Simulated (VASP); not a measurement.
# Convergence of energy and pressure with the k mesh for Rh in LDA plane-wave runs

Making the k mesh of a metal finer does not simply shrink the error. In Rh the energy is first far too high, then too low, then too high again, and one refinement makes the pressure worse. This matters for metal contacts and films, because a pressure error becomes an error in lattice constant and strain, and an energy error of a few meV per atom can blur a comparison between structures. We follow single-point LDA runs at one fixed cell, with 0.05 eV Fermi-Dirac smearing, from a 3×3×3 to an 18×18×18 mesh. Errors are differences from the 18×18×18 run, which need not itself be fully converged. A positive energy error means too high an energy, and a positive pressure error too much compression.

## Computational details

Single-point runs at fixed cell and atoms; within a crystal every other setting is the same. Program: VASP 6.6.1, plane waves and PAW (data sets made for PBE of release 64), scalar-relativistic without spin-orbit coupling, no spin polarisation. Cutoff 400 eV; on the k meshes the divisions times the cell-vector length are 8 Å or more. Occupations: Fermi-Dirac smearing of 0.05 eV. The coarsest mesh (8 Å) is coarse for metals and narrow gaps. Times are rough, from shared x86 server processors.

Notes on method and selection:

- The reference is the densest mesh run, which need not be fully converged.
- Without a gap the mesh has to resolve the Fermi surface, so errors need not fall smoothly.
- The space group named is that of the cell as run, which can be lower than that of the source structure.
- Runs that did not converge, have known faults or may not be shown are not listed, and runs on Ansatz's PAW sets soft_1 and soft_2 are kept to separate tables.

Columns:

- k-mesh length (Å): k-mesh length, the least over the axes of divisions times cell-vector length.
- k points: irreducible k points.
- energy error (meV/atom): energy per atom, extrapolated to zero smearing as the program prints it, minus that of the run on the densest mesh of the same crystal.
- pressure error (GPa): pressure minus that of the run on the densest mesh of the same crystal, compression positive.
- cost (core-s): processor time of the run, shared machines, rough.

Input lines of one member:

```
PREC = Accurate
ENCUT = 400
EDIFF = 1E-06
NELM = 100
ISMEAR = -1
SIGMA = 0.05
LREAL = .FALSE.
ALGO = Normal
GGA = CA
NBANDS = 13
LASPH = .TRUE.
LORBIT = 11
ISIF = 2
```

Command (options for logging and memory left out): `vasp_std`

## Numbers

| member | k-mesh length (Å) | k points | energy error (meV/atom) | pressure error (GPa) | cost (core-s) | remark |
| --- | --- | --- | --- | --- | --- | --- |
| k 3×3×3 | 8.1 | 4 | 1440.59 | 24.920 | 1.4 |  |
| k 4×4×4 | 10.7 | 8 | −445.41 | −7.142 | 1.5 |  |
| k 5×5×5 | 13.4 | 10 | 157.74 | 2.812 | 1.5 |  |
| k 7×7×7 | 18.8 | 20 | ? | ? | 2.3 |  |
| k 9×9×9 | 24.2 | 35 | 5.46 | 0.048 | 3 |  |
| k 12×12×12 | 32.2 | 72 | −4.14 | −0.203 | 4.8 |  |
| k 15×15×15 | 40.3 | 120 | −0.37 | −0.020 | 7.7 |  |
| k 18×18×18 | 48.3 | 195 | 0.00 | 0.000 | 12 | known phase |

Cells marked ? are withheld until the estimate has been made.

energy error (meV/atom) against k-mesh length (Å), members shown:

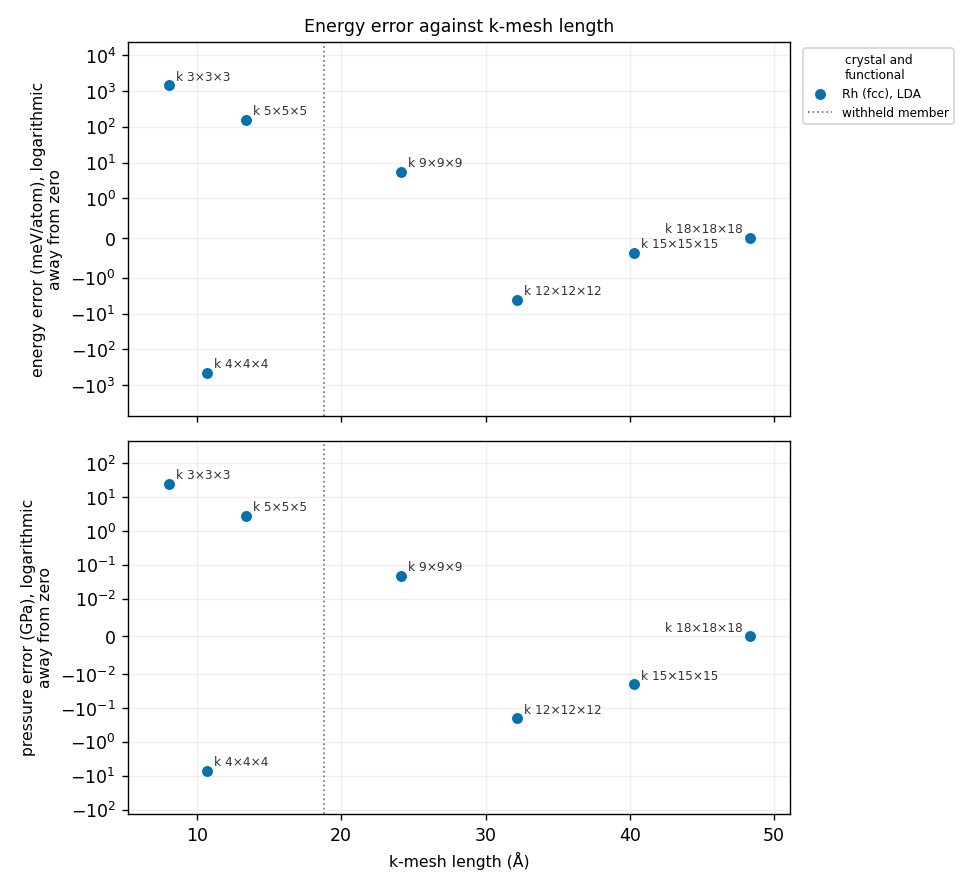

## What drives the series

The energy error falls from 1440.59 meV/atom at 3×3×3 to 5.46 at 9×9×9, a factor of 1440.59 / 5.46 = 264, but it changes sign on the way. Rh has partly filled d bands, so the occupation drops sharply across the Fermi surface. The number of electrons is fixed, but a coarse mesh gives too much weight to some states and too little to others, depending on where its points fall, and the Fermi level shifts to keep the electron count. Refinement shifts the points relative to that surface, so the error oscillates as it decays, and smearing damps the oscillation on fine meshes.

The pressure error has the same sign as the energy error in every row shown outside the reference. A simple d-band argument gives its size. If the energy error scales with the band width, and the width with volume as V^(−5/3), then δP = (5/3) δE / V. The cell-vector length is 48.3 / 18 = 2.68 Å, which for the fcc primitive cell gives V = 2.68³ / √2 = 13.6 Å³. With 5 / 3 = 1.667 and 1 meV/Å³ = 0.1602 GPa, the 3×3×3 error becomes 1.667 × 1440.59 × 0.1602 / 13.6 = 28 GPa, against 24.920 in the table. At 4×4×4 and 5×5×5 the formula is likewise somewhat too large in magnitude. It fails by more than a factor of two at 9×9×9, 12×12×12 and 15×15×15, where the remaining error probably depends on details of the Fermi surface rather than on the overall band width.

The small pressure error at 9×9×9, 0.048 GPa, is therefore no sign of convergence: at 12×12×12 it is −0.203 GPa. At 15×15×15 the differences from the reference are −0.37 meV/atom and −0.020 GPa, for about 7.7 core-seconds. Cost rises more slowly than the number of k points on the coarse meshes, as expected when fixed start-up work dominates. For this small cell there is little reason to save on the mesh.

## A prediction

Plain estimates from the members shown:

- k 7×7×7, straight-line interpolation between k 5×5×5 and k 9×9×9: w = (18.8 − 13.4) / (24.2 − 13.4) = 0.500, so 157.74 + 0.500 × (5.46 − 157.74) = 81.60 meV/atom

The straight-line estimate of 81.60 meV/atom is likely to be too high, because on the meshes shown the size of the error falls more nearly by factors, though uneven ones, than by constant amounts. We therefore interpolate the logarithm of its magnitude. The 7×7×7 mesh lies midway in length between 5×5×5 and 9×9×9, so the estimate is √(157.74 × 5.46) = 29.3 meV/atom.

The same route can be tried on three shown meshes:

- 4×4×4, from its neighbours: √(1440.59 × 157.74) = 477, against a magnitude of 445.41.
- 5×5×5, from 3×3×3 and 9×9×9: 1440.59 × (5.46 / 1440.59)^0.329 = 230, against 157.74.
- 12×12×12, from 9×9×9 and 15×15×15: √(5.46 × 0.37) = 1.42, against 4.14.

The logarithmic misses are 0.07, 0.38 and ln(4.14 / 1.42) = 1.07, with a root mean square of 0.66, or a factor of 2.718^0.66 = 1.93. On the upper side this gives 29.3 × (1.93 − 1) = 27 meV/atom, which we take as the error bar.

The sign is less secure than the magnitude. We take it as positive because the odd meshes on either side, and 3×3×3 as well, have positive errors. The small negative value at 15×15×15 shows that this pattern is not a strict rule, and a negative result would lie about two error bars away.

**Committed estimate, k 7×7×7: energy error = 29 ± 27 meV/atom.**

## Check

| member | k-mesh length (Å) | k points | energy error (meV/atom) | pressure error (GPa) | cost (core-s) |
| --- | --- | --- | --- | --- | --- |
| k 7×7×7 | 18.8 | 20 | −62.16 | −1.389 | 2.3 |

| member | estimate | energy error (meV/atom) | computed | estimate − computed | miss in error bars |
| --- | --- | --- | --- | --- | --- |
| k 7×7×7 | committed | 29.00 | −62.16 | +91.16 | 3.4 |
| k 7×7×7 | interpolation | 81.60 | −62.16 | +143.76 |  |

energy error (meV/atom) against k-mesh length (Å):

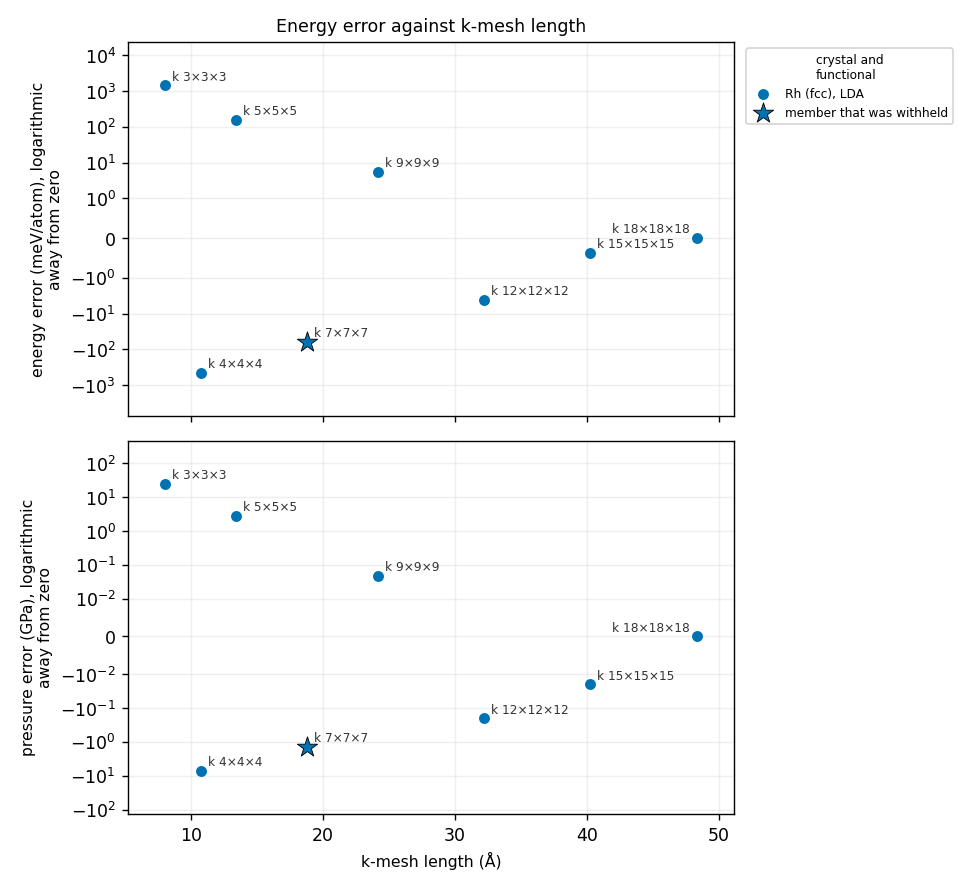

The estimate of 29 ± 27 meV/atom failed: the computed error is −62.16, which is 3.4 error bars away. It was still closer than the straight-line interpolation, which missed by 143.76 meV/atom against our 91.16.

The sign argument was wrong. We expected a positive error because the neighbouring odd meshes have one, and 7×7×7 refutes that pattern. The magnitude was also too small, by a factor of 62.16 / 29.3 = 2.12, slightly more than the factor of 1.93 found in the trials. Our error bar covered only the scatter in magnitude and left out the chance of a wrong sign, so it was too narrow.

The link between energy and pressure through the d-band width did hold. With the formula and volume given above, −62.16 meV/atom corresponds to 1.667 × (−62.16) × 0.1602 / 13.6 = −1.22 GPa, against −1.389 in the table. An error that oscillates as it decays fits the new row, but the parity of the mesh does not give its sign.

## Where the trend breaks

The 3×3×3 mesh has by far the largest error, 1440.59 meV/atom and 24.920 GPa. With only four irreducible k points it samples the partly filled d bands very crudely, and it fits the steep decay towards 5×5×5.

The mesh that departs most from the decay is 9×9×9, whose error is unusually small. Logarithmic interpolation in mesh length between 7×7×7 and 12×12×12 gives a magnitude of 62.16 × (4.14 / 62.16)^0.403 = 21 meV/atom, but the table has 5.46. The likeliest reason is a partial cancellation between regions of the Brillouin zone where occupation is overcounted and regions where it is undercounted. The pressure error of only 0.048 GPa is in keeping with this. The next mesh, 12×12×12, then looks poor by comparison, with nearly the same energy error in magnitude and a larger pressure error.

## Cost

The three coarsest meshes all take about 1.5 core-seconds, so nothing is saved by going below 5×5×5. Going from 5×5×5 to 15×15×15 raises the cost from 1.5 to 7.7 core-seconds and lowers the magnitude of the energy error from 157.74 to 0.37 meV/atom.

On the dense meshes each further k point costs roughly (12 − 4.8) / (195 − 72) = 0.06 core-seconds. For one atom per cell this is negligible. It begins to matter when the same mesh density is used for many structures or for cells with many atoms.

## Conclusions

For this Rh cell, 12×12×12 is within about 4 meV/atom and 0.2 GPa of the densest mesh, and 15×15×15 within 0.4 meV/atom and 0.02 GPa. Logarithmic interpolation between neighbouring meshes missed the magnitude of the energy error by factors of roughly 1.1 to 3.8, and it cannot give the sign.

For a stiff metal with a bulk modulus of roughly 300 GPa, the pressure error at 7×7×7 makes the lattice constant too small by a fraction of about 1.389 / (3 × 300) = 0.0015. At 12×12×12 this falls to 0.203 / (3 × 300) = 0.0002.

The errors in the table are differences between runs that share every other setting, so effects of the functional and of lattice vibrations largely cancel in them. The pressure itself is another matter. At this fixed cell a gradient-corrected functional would raise it, and so would lattice vibrations, since both favour a larger cell. A finer mesh removes neither effect.

[Logs are printed without paths, hosts, clocks, repeated set-up lines and the standing remarks that a program may print on its own settings, such as how far it seeks lower states.]
